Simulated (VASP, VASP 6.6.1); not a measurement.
# Lattice constants of bulk WS$_2$: layer spacing with semilocal, dispersion-corrected and nonlocal functionals

## What was measured

Bulk WS$_2$ in its two-layer hexagonal form has a measured in-plane constant $a$ of 3.1532 Å and a stacking constant $c$ of 12.323 Å. Both come from X-ray diffraction and are quoted as literature values in "Extraordinary room-temperature photoluminescence in WS2 monolayers" (2012, arXiv:1208.1325). I take this $c$ as the reference. A second paper, "Pressure coefficients for direct optical transitions in MoS2, MoSe2, WS2, and WSe2 crystals and semiconductor to metal t" (2016, PubMed Central 4877596), cites 12.32 Å for $c$, without a method given with the value. I suspect this is the same determination, rounded, so I don't count it as independent support. To my knowledge the diffraction value belongs to a single crystal at room temperature; powders with stacking faults can show a slightly longer $c$.

| compared with | measured | source's wording or label | method |
| --- | --- | --- | --- |
| lattice constant a of the conventional cell (Å) | 3.1532 | – | X-ray diffraction (literature) |
| lattice constant c of the conventional cell (Å) | 12.323 | – | X-ray diffraction (literature) * |
| lattice constant c of the conventional cell (Å) | 12.32 | c, literature experiment | not stated |

Where a quantity has several values, deviations refer to the one marked *.

Conditions are those given with the value in the passage it was taken from; "not stated" means there, and the paper may say more elsewhere. The values are a selection: others, judged unlike or outlying, were left out beforehand.

## Approach

I want the cheapest level of theory that gives both $a$ and $c$ within 1 % of the diffraction values. The two constants test different things: $a$ follows from the strong W–S bonds inside a layer, $c$ largely from the weak attraction between layers. For $c$ the limit is about 0.12 Å, small enough to expose a functional that binds the layers badly. It also leaves room for thermal expansion and zero-point motion, which the static calculations omit and which I expect to lengthen $c$ by some tenths of a per cent at room temperature.

The model is the perfect six-atom hexagonal cell, nonmagnetic, with cell and atoms relaxed under fixed symmetry. I start from the diffraction cell stretched by 3 % in volume, so that the relaxation has to find its own way back. The k mesh is settled first with a plain semilocal functional. Then I compare functionals at one setting, adding a description of dispersion if the layer spacing calls for it.

System: WS2, space group P6_3/mmc (Tungstenite); P6_3/mmc (No. 194), 6 atoms in the cell; conventional a = 3.153, c = 12.323 A, from a published structure refinement (COD).

On the selection of runs and values: 2 further cited values are not listed: repeats, values quoted from earlier work, more than five for one quantity or six quantities, optical onsets of an indirect gap, modes that a denser mesh moves by over 3 %, or quantities that fewer than three runs give.

## 1. PBEsol and the k mesh

PBEsol is cheap and usually good for bond lengths in solids, so $a$ should come out well. It contains no long-range dispersion, and I expect $c$ to be too long. Three meshes, from a very coarse one upwards, should show how light the sampling may be before functionals are compared.

**Run 1.** VASP 6.6.1: PBEsol; 450 eV, 4x4x1 k mesh; cell and atoms relaxed, relaxed twice, LASPH on.

Key lines of the input:
```
ALGO = Normal
EDIFF = 1E-06
EDIFFG = -0.006
ENCUT = 450
GGA = PS
IBRION = 2
ISIF = 3
ISMEAR = 0
LASPH = .TRUE.
NBANDS = 24
NELM = 100
NSW = 50
PREC = Accurate
SIGMA = 0.03
KPOINTS: Gamma, 4 4 1
PAW data sets: W S (PBE 64)
```

Command:
```
mpirun -np 8 vasp_std
```

Selected lines of the output:
```
     0.000000000  0.000000000 13.000582967     0.000000000  0.000000000  0.076919628
```

Converged; 65 s on 8 cores of AMD EPYC 7R43 64, shared host (all steps together).

**Run 2.** VASP 6.6.1: PBEsol; 450 eV, 6x6x2 k mesh; cell and atoms relaxed, LASPH on.

Key lines of the input, as changed from run 1:
```diff
- KPOINTS: Gamma, 4 4 1
+ KPOINTS: Gamma, 6 6 2
```

Selected lines of the output:
```
     0.000000000  0.000000000 12.644638921     0.000000000  0.000000000  0.079084900
```

Converged; 2.2 min, same machine (all steps together).

**Run 3.** VASP 6.6.1: PBEsol; 450 eV, 9x9x2 k mesh; cell and atoms relaxed, LASPH on.

Key lines of the input, as changed from run 1:
```diff
- KPOINTS: Gamma, 4 4 1
+ KPOINTS: Gamma, 9 9 2
```

Selected lines of the output:
```
     0.000000000 -0.000000000 12.663539788     0.000000000 -0.000000000  0.078966862
```

Converged; 4.3 min, same machine (all steps together).

| quantity | run 1 | run 2 | run 3 | measured |
| --- | --- | --- | --- | --- |
| lattice constant a of the conventional cell (Å) | 3.1413 | 3.1426 | 3.1422 | 3.1532 |
| lattice constant c of the conventional cell (Å) | 13.001 | 12.645 | 12.664 | 12.323 |
| volume of the conventional cell (Å³) | 111.10 | 108.15 | 108.28 |  |
| space group at the end | P6_3/mmc | P6_3/mmc | P6_3/mmc |  |
| pressure left at the end (GPa) | 0.0039 | 0.0071 | 0.0014 |  |

The in-plane constant hardly notices the mesh: all three values of $a$ lie within about 0.001 Å of each other and 0.3 to 0.4 % below the measured one. The stacking constant does notice it. The coarsest mesh, with a single division along the stacking direction, gives a $c$ about 0.36 Å longer than the 6×6×2 mesh, three times the whole tolerance. From there to 9×9×2 it moves by only 0.019 Å, which for so soft a direction may be no more than the scatter between two relaxations. These two meshes share the same division along $c$, however, so their agreement says nothing about finer sampling in that direction.

At 9×9×2 PBEsol leaves $c$ 2.8 % too long, a clear miss. The sign is that of missing attraction between the layers, while the bonds within them are already described well enough.

## 2. Adding pairwise dispersion

The D3(BJ) correction adds the missing attraction at almost no cost per step, since it depends only on the positions of the atoms. I put it on PBEsol, where the comparison with the last run isolates its effect, and also on PBE, its more common partner. I expect $c$ to shrink in PBEsol by a few tenths of an ångström. The risk is in $a$, which is already short and can only be pulled in further. PBE usually gives longer bonds and so has more room for that contraction. Both runs use the 9×9×2 mesh.

**Run 4.** VASP 6.6.1: PBEsol + D3(BJ); 450 eV, 9x9x2 k mesh; cell and atoms relaxed, relaxed twice, LASPH on.

Key lines of the input, as changed from run 3:
```diff
+ IVDW = 12
```

Selected lines of the output:
```
     0.000000000  0.000000000 11.769669775     0.000000000  0.000000000  0.084964151
```

Converged; 2.9 min, same machine (all steps together).

**Run 5.** VASP 6.6.1: PBE + D3(BJ); 450 eV, 9x9x2 k mesh; cell and atoms relaxed, relaxed twice, LASPH on.

Key lines of the input, as changed from run 4:
```diff
- GGA = PS
+ GGA = PE
```

Selected lines of the output:
```
     0.000000000  0.000000000 12.124266774     0.000000000  0.000000000  0.082479215
```

Converged; 2.1 min, same machine (all steps together).

| quantity | run 4 | run 5 | measured |
| --- | --- | --- | --- |
| lattice constant a of the conventional cell (Å) | 3.1115 | 3.1491 | 3.1532 |
| lattice constant c of the conventional cell (Å) | 11.770 | 12.124 | 12.323 |
| volume of the conventional cell (Å³) | 98.68 | 104.13 |  |
| space group at the end | P6_3/mmc | P6_3/mmc |  |
| pressure left at the end (GPa) | 0.0107 | −0.0095 |  |

Dispersion shortens $c$ far more than I expected. In PBEsol it drops by 0.894 Å, from 2.8 % too long to 4.5 % too short, and $a$ falls 1.3 % below the measured value, so both constants now miss. PBEsol may already supply part of the attraction at intermediate distances that D3 adds again, but that is conjecture.

PBE + D3(BJ) does much better. Its $a$ is only 0.1 % short, while $c$ is 1.6 % short and outside the limit. Thermal expansion would lengthen the cell and so reduce this miss, though tenths of a per cent would hardly remove it.

## 3. Sampling along the stacking axis, and cutoff

A miss of 0.199 Å in $c$ is smaller than the shift the coarsest mesh caused, and every run since has used two divisions along the stacking axis. Before trying more functionals I double that number with a 12×12×4 mesh, and separately raise the cutoff to 600 eV, both in plain PBEsol. Its weakly bound layers should make it a sensitive test, although the result will hold strictly for PBEsol alone. I expect both changes in $c$ to stay well below the tolerance.

**Run 6.** VASP 6.6.1: PBEsol; 450 eV, 12x12x4 k mesh; cell and atoms relaxed, LASPH on.

Key lines of the input, as changed from run 1:
```diff
- KPOINTS: Gamma, 4 4 1
+ KPOINTS: Gamma, 12 12 4
```

Selected lines of the output:
```
     0.000000000  0.000000000 12.607705836    -0.000000000  0.000000000  0.079316571
```

Converged; 5 min, same machine (all steps together).

**Run 7.** VASP 6.6.1: PBEsol; 600 eV, 9x9x2 k mesh; cell and atoms relaxed, LASPH on.

Key lines of the input, as changed from run 3:
```diff
- ENCUT = 450
+ ENCUT = 600
```

Selected lines of the output:
```
    -0.000000000  0.000000000 12.702623212     0.000000000 -0.000000000  0.078723897
```

Converged; 4.3 min, same machine (all steps together).

| quantity | run 6 | run 7 | measured |
| --- | --- | --- | --- |
| lattice constant a of the conventional cell (Å) | 3.1422 | 3.1432 | 3.1532 |
| lattice constant c of the conventional cell (Å) | 12.608 | 12.703 | 12.323 |
| volume of the conventional cell (Å³) | 107.80 | 108.68 |  |
| space group at the end | P6_3/mmc | P6_3/mmc |  |
| pressure left at the end (GPa) | −0.0198 | −0.0184 |  |

The denser mesh shortens $c$ by 0.056 Å and the higher cutoff lengthens it by 0.039 Å; $a$ moves by at most 0.001 Å. Both changes in $c$ are well inside the tolerance of about 0.12 Å. I can't assign them firmly to mesh or cutoff, because relaxations of such weakly bound layers may stop at slightly different spacings. PBEsol stays more than 2 % too long in $c$ with either setting, so its miss stands.

For PBE + D3(BJ) this is only indirect evidence. Its $c$ lies about 0.08 Å outside the limit, not far beyond the size of these shifts, and I treat its miss as less secure than that of PBEsol.

## 4. The plain functionals LDA and PBE

Before paying for a nonlocal functional I want the two remaining simple ones, LDA and uncorrected PBE, at 450 eV and 9×9×2. LDA has no long-range dispersion either, but its overbinding often brings layers to a reasonable distance. I expect both constants to come out short, with $c$ possibly within the limit for a reason that is not the right physics. PBE should leave the layers much too far apart, and its difference from PBE + D3(BJ) will show how much of that spacing the correction controls.

**Run 8.** VASP 6.6.1: LDA; 450 eV, 9x9x2 k mesh; cell and atoms relaxed, relaxed twice, LASPH on.

Key lines of the input, as changed from run 3:
```diff
- GGA = PS
+ GGA = CA
- PAW data sets: W S (PBE 64)
+ PAW data sets: W S (LDA 64)
```

Selected lines of the output:
```
     0.000000000  0.000000000 12.149891483    -0.000000000  0.000000000  0.082305262
```

Converged; 2.4 min, same machine (all steps together).

**Run 9.** VASP 6.6.1: PBE; 450 eV, 9x9x2 k mesh; cell and atoms relaxed, relaxed twice, LASPH on.

Key lines of the input, as changed from run 5:
```diff
- IVDW = 12
```

Selected lines of the output:
```
     0.000000000  0.000000000 14.352346417     0.000000000  0.000000000  0.069675018
```

Converged; 5.5 min, same machine (all steps together).

| quantity | run 8 | run 9 | measured |
| --- | --- | --- | --- |
| lattice constant a of the conventional cell (Å) | 3.1247 | 3.1821 | 3.1532 |
| lattice constant c of the conventional cell (Å) | 12.150 | 14.352 | 12.323 |
| volume of the conventional cell (Å³) | 102.73 | 125.86 |  |
| space group at the end | P6_3/mmc | P6_3/mmc |  |
| pressure left at the end (GPa) | −0.0184 | −0.0052 |  |

LDA shortens both constants. Its $a$ passes narrowly at 0.9 % below the measured value, but $c$ is 1.4 % short and misses by about 0.05 Å, a margin no larger than the shifts seen in the PBEsol tests. I don't rank it against PBE + D3(BJ) on so small a difference.

Plain PBE keeps $a$ within the limit, also narrowly, and fails completely for the stacking: $c$ is 2.03 Å too long. Adding D3(BJ) shortens it by 2.228 Å. With PBE, then, the layer spacing depends almost entirely on the dispersion term, and a modest error in that term is enough to spoil $c$.

## 5. Meta-GGA and nonlocal correlation

What remains is to improve the description of the attraction itself. r2SCAN includes some of it at intermediate range, and I expect its $c$ to be somewhat long. Adding rVV10 supplies the long-range part from the electron density and should draw the layers together. vdW-DF-cx also uses nonlocal correlation, with an exchange part chosen to match it, and usually gives good bond lengths as well as layer spacings. All three need more work per electronic step than a plain GGA. I keep the cutoff and mesh of the earlier functional comparison, and run r2SCAN with and without rVV10 to see whether the extra term is needed.

**Run 10.** VASP 6.6.1: r2SCAN; 450 eV, 9x9x2 k mesh; cell and atoms relaxed, relaxed twice, LASPH on.

Key lines of the input, as changed from run 3:
```diff
- GGA = PS
+ METAGGA = R2SCAN
```

Selected lines of the output:
```
     0.000000000  0.000000000 13.035692692     0.000000000  0.000000000  0.076712456
```

Converged; 17 min, same machine (all steps together).

**Run 11.** VASP 6.6.1: r2SCAN + rVV10; 450 eV, 9x9x2 k mesh; cell and atoms relaxed, LASPH on.

Key lines of the input, as changed from run 10:
```diff
+ BPARAM = 11.95
+ CPARAM = 0.0093
+ IVDW_NL = 2
+ LUSE_VDW = .TRUE.
```

Selected lines of the output:
```
     0.000000000  0.000000000 12.469917718     0.000000000 -0.000000000  0.080192991
```

Converged; 24 min, same machine (all steps together).

**Run 12.** VASP 6.6.1: vdW-DF-cx; 450 eV, 9x9x2 k mesh; cell and atoms relaxed, relaxed twice, LASPH on.

Key lines of the input, as changed from run 3:
```diff
+ AGGAC = 0
- GGA = PS
+ GGA = CX
+ LUSE_VDW = .TRUE.
```

Selected lines of the output:
```
     0.000000000  0.000000000 12.333617434     0.000000000  0.000000000  0.081079213
```

Converged; 16 min, same machine (all steps together).

| quantity | run 10 | run 11 | run 12 | measured |
| --- | --- | --- | --- | --- |
| lattice constant a of the conventional cell (Å) | 3.1756 | 3.1664 | 3.1512 | 3.1532 |
| lattice constant c of the conventional cell (Å) | 13.036 | 12.470 | 12.334 | 12.323 |
| volume of the conventional cell (Å³) | 113.85 | 108.28 | 106.06 |  |
| space group at the end | P6_3/mmc | P6_3/mmc | P6_3/mmc |  |
| pressure left at the end (GPa) | 0.0089 | 0.0458 | 0.0380 |  |

vdW-DF-cx meets both limits: $a$ is 0.002 Å short and $c$ 0.011 Å long. The agreement in $c$ is closer than the numerical settings can support, since refining the mesh beyond 9×9×2 moved it by 0.056 Å in PBEsol. A shift of that size would still leave vdW-DF-cx inside the limit, but mesh and cutoff tests with this functional are not shown in this report.

r2SCAN alone leaves $c$ 5.8 % too long, more than the "somewhat long" I had expected and worse than PBEsol. Adding rVV10 shortens it by 0.566 Å and also improves $a$. The remaining error in $c$ is 1.2 %, a narrow miss by about 0.02 Å, which a change of mesh or cutoff could overturn. The long-range term is clearly needed with r2SCAN, but whether the combination meets the target is not settled by this run.

## All runs against the measurement

| run | settings | lattice constant a of the conventional cell (Å) | deviation | lattice constant c of the conventional cell (Å) | deviation | cost |
| --- | --- | --- | --- | --- | --- | --- |
| 1 | PBEsol, 450 eV, 4x4x1 k mesh, relaxed twice | 3.1413 | −0.0119 (−0.4 %) | 13.001 | +0.678 (+5.5 %) | 8.6 core-min |
| 2 | PBEsol, 450 eV, 6x6x2 k mesh | 3.1426 | −0.0106 (−0.3 %) | 12.645 | +0.322 (+2.6 %) | 18 core-min |
| 3 | PBEsol, 450 eV, 9x9x2 k mesh | 3.1422 | −0.0110 (−0.3 %) | 12.664 | +0.341 (+2.8 %) | 34 core-min |
| 4 | PBEsol + D3(BJ), 450 eV, 9x9x2 k mesh, relaxed twice | 3.1115 | −0.0417 (−1.3 %) | 11.770 | −0.553 (−4.5 %) | 23 core-min |
| 5 | PBE + D3(BJ), 450 eV, 9x9x2 k mesh, relaxed twice | 3.1491 | −0.0041 (−0.1 %) | 12.124 | −0.199 (−1.6 %) | 17 core-min |
| 6 | PBEsol, 450 eV, 12x12x4 k mesh | 3.1422 | −0.0110 (−0.3 %) | 12.608 | +0.285 (+2.3 %) | 40 core-min |
| 7 | PBEsol, 600 eV, 9x9x2 k mesh | 3.1432 | −0.0100 (−0.3 %) | 12.703 | +0.380 (+3.1 %) | 35 core-min |
| 8 | LDA, 450 eV, 9x9x2 k mesh, relaxed twice | 3.1247 | −0.0285 (−0.9 %) | 12.150 | −0.173 (−1.4 %) | 19 core-min |
| 9 | PBE, 450 eV, 9x9x2 k mesh, relaxed twice | 3.1821 | +0.0289 (+0.9 %) | 14.352 | +2.029 (+16.5 %) | 44 core-min |
| 10 | r2SCAN, 450 eV, 9x9x2 k mesh, relaxed twice | 3.1756 | +0.0224 (+0.7 %) | 13.036 | +0.713 (+5.8 %) | 2.2 core-h |
| 11 | r2SCAN + rVV10, 450 eV, 9x9x2 k mesh | 3.1664 | +0.0132 (+0.4 %) | 12.470 | +0.147 (+1.2 %) | 3.2 core-h |
| 12 | vdW-DF-cx, 450 eV, 9x9x2 k mesh, relaxed twice | 3.1512 | −0.0020 (−0.1 %) | 12.334 | +0.011 (+0.1 %) | 2.1 core-h |
|  | measured | 3.1532 |  | 12.323 |  |  |

The runs in order, against the measurement:

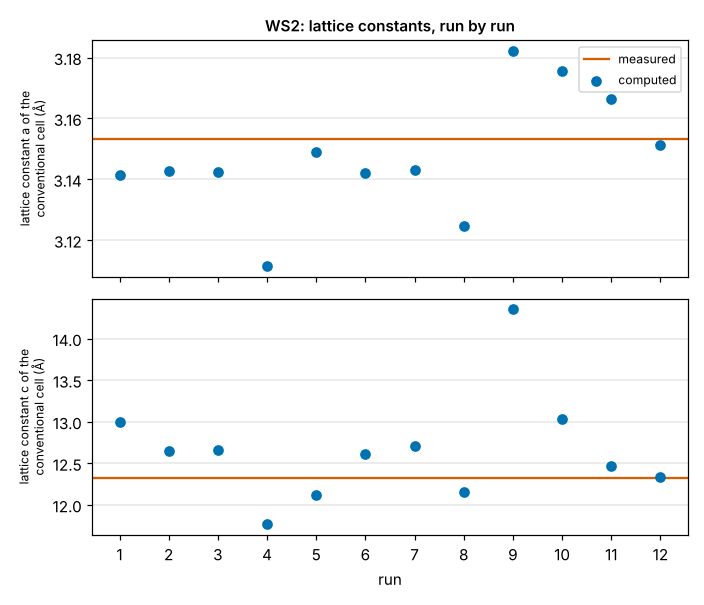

## Conclusion

vdW-DF-cx meets the target: $a$ comes out 0.1 % short and $c$ 0.1 % long, at a cost of 2.1 core-hours. It is the only level shown here with both constants inside 1 %, and so the cheapest of these that is accurate enough. The simpler functionals took less than one core-hour each, but none of them gave a satisfactory $c$.

The in-plane constant was easy; only PBEsol + D3(BJ) missed it. The layer spacing decided the outcome. Plain PBE, PBEsol and r2SCAN leave it too long, and adding a dispersion term shortens it each time, though with PBEsol the correction overshoots badly. vdW-DF-cx includes nonlocal correlation, so its success has a sound physical basis. LDA lacks that attraction, and its fairly close $c$ owes more to overbinding. The coarsest mesh was useful only as a warning.

The near-perfect $c$ should not be taken at face value. Thermal expansion and zero-point motion, roughly some tenths of a per cent, would lengthen the computed cell and move vdW-DF-cx slightly away from the measurement, probably still within the limit. The same correction would widen the narrow miss of r2SCAN + rVV10 and reduce those of LDA and PBE + D3(BJ), possibly enough to bring LDA inside.

The mesh and cutoff tests shown here are for PBEsol, where refining either setting beyond 9×9×2 and 450 eV moved $c$ by up to 0.056 Å. The margin of vdW-DF-cx is wider than that, but its own convergence is not shown in this report. The order of the three near misses is also unsettled. The reference is a literature value quoted at second hand, and the other citation probably repeats it.

[Logs are printed without paths, hosts, clocks, repeated set-up lines and the standing remarks that a program may print on its own settings, such as how far it seeks lower states.]

[The runs shown are a pick from a larger set of finished runs; failed, doubtful and other runs were left out of it ahead of writing. So were measured values far from every level or from commonly accepted values, and agreement can look better than it is. Lines of input and output are excerpts and may be shortened.]
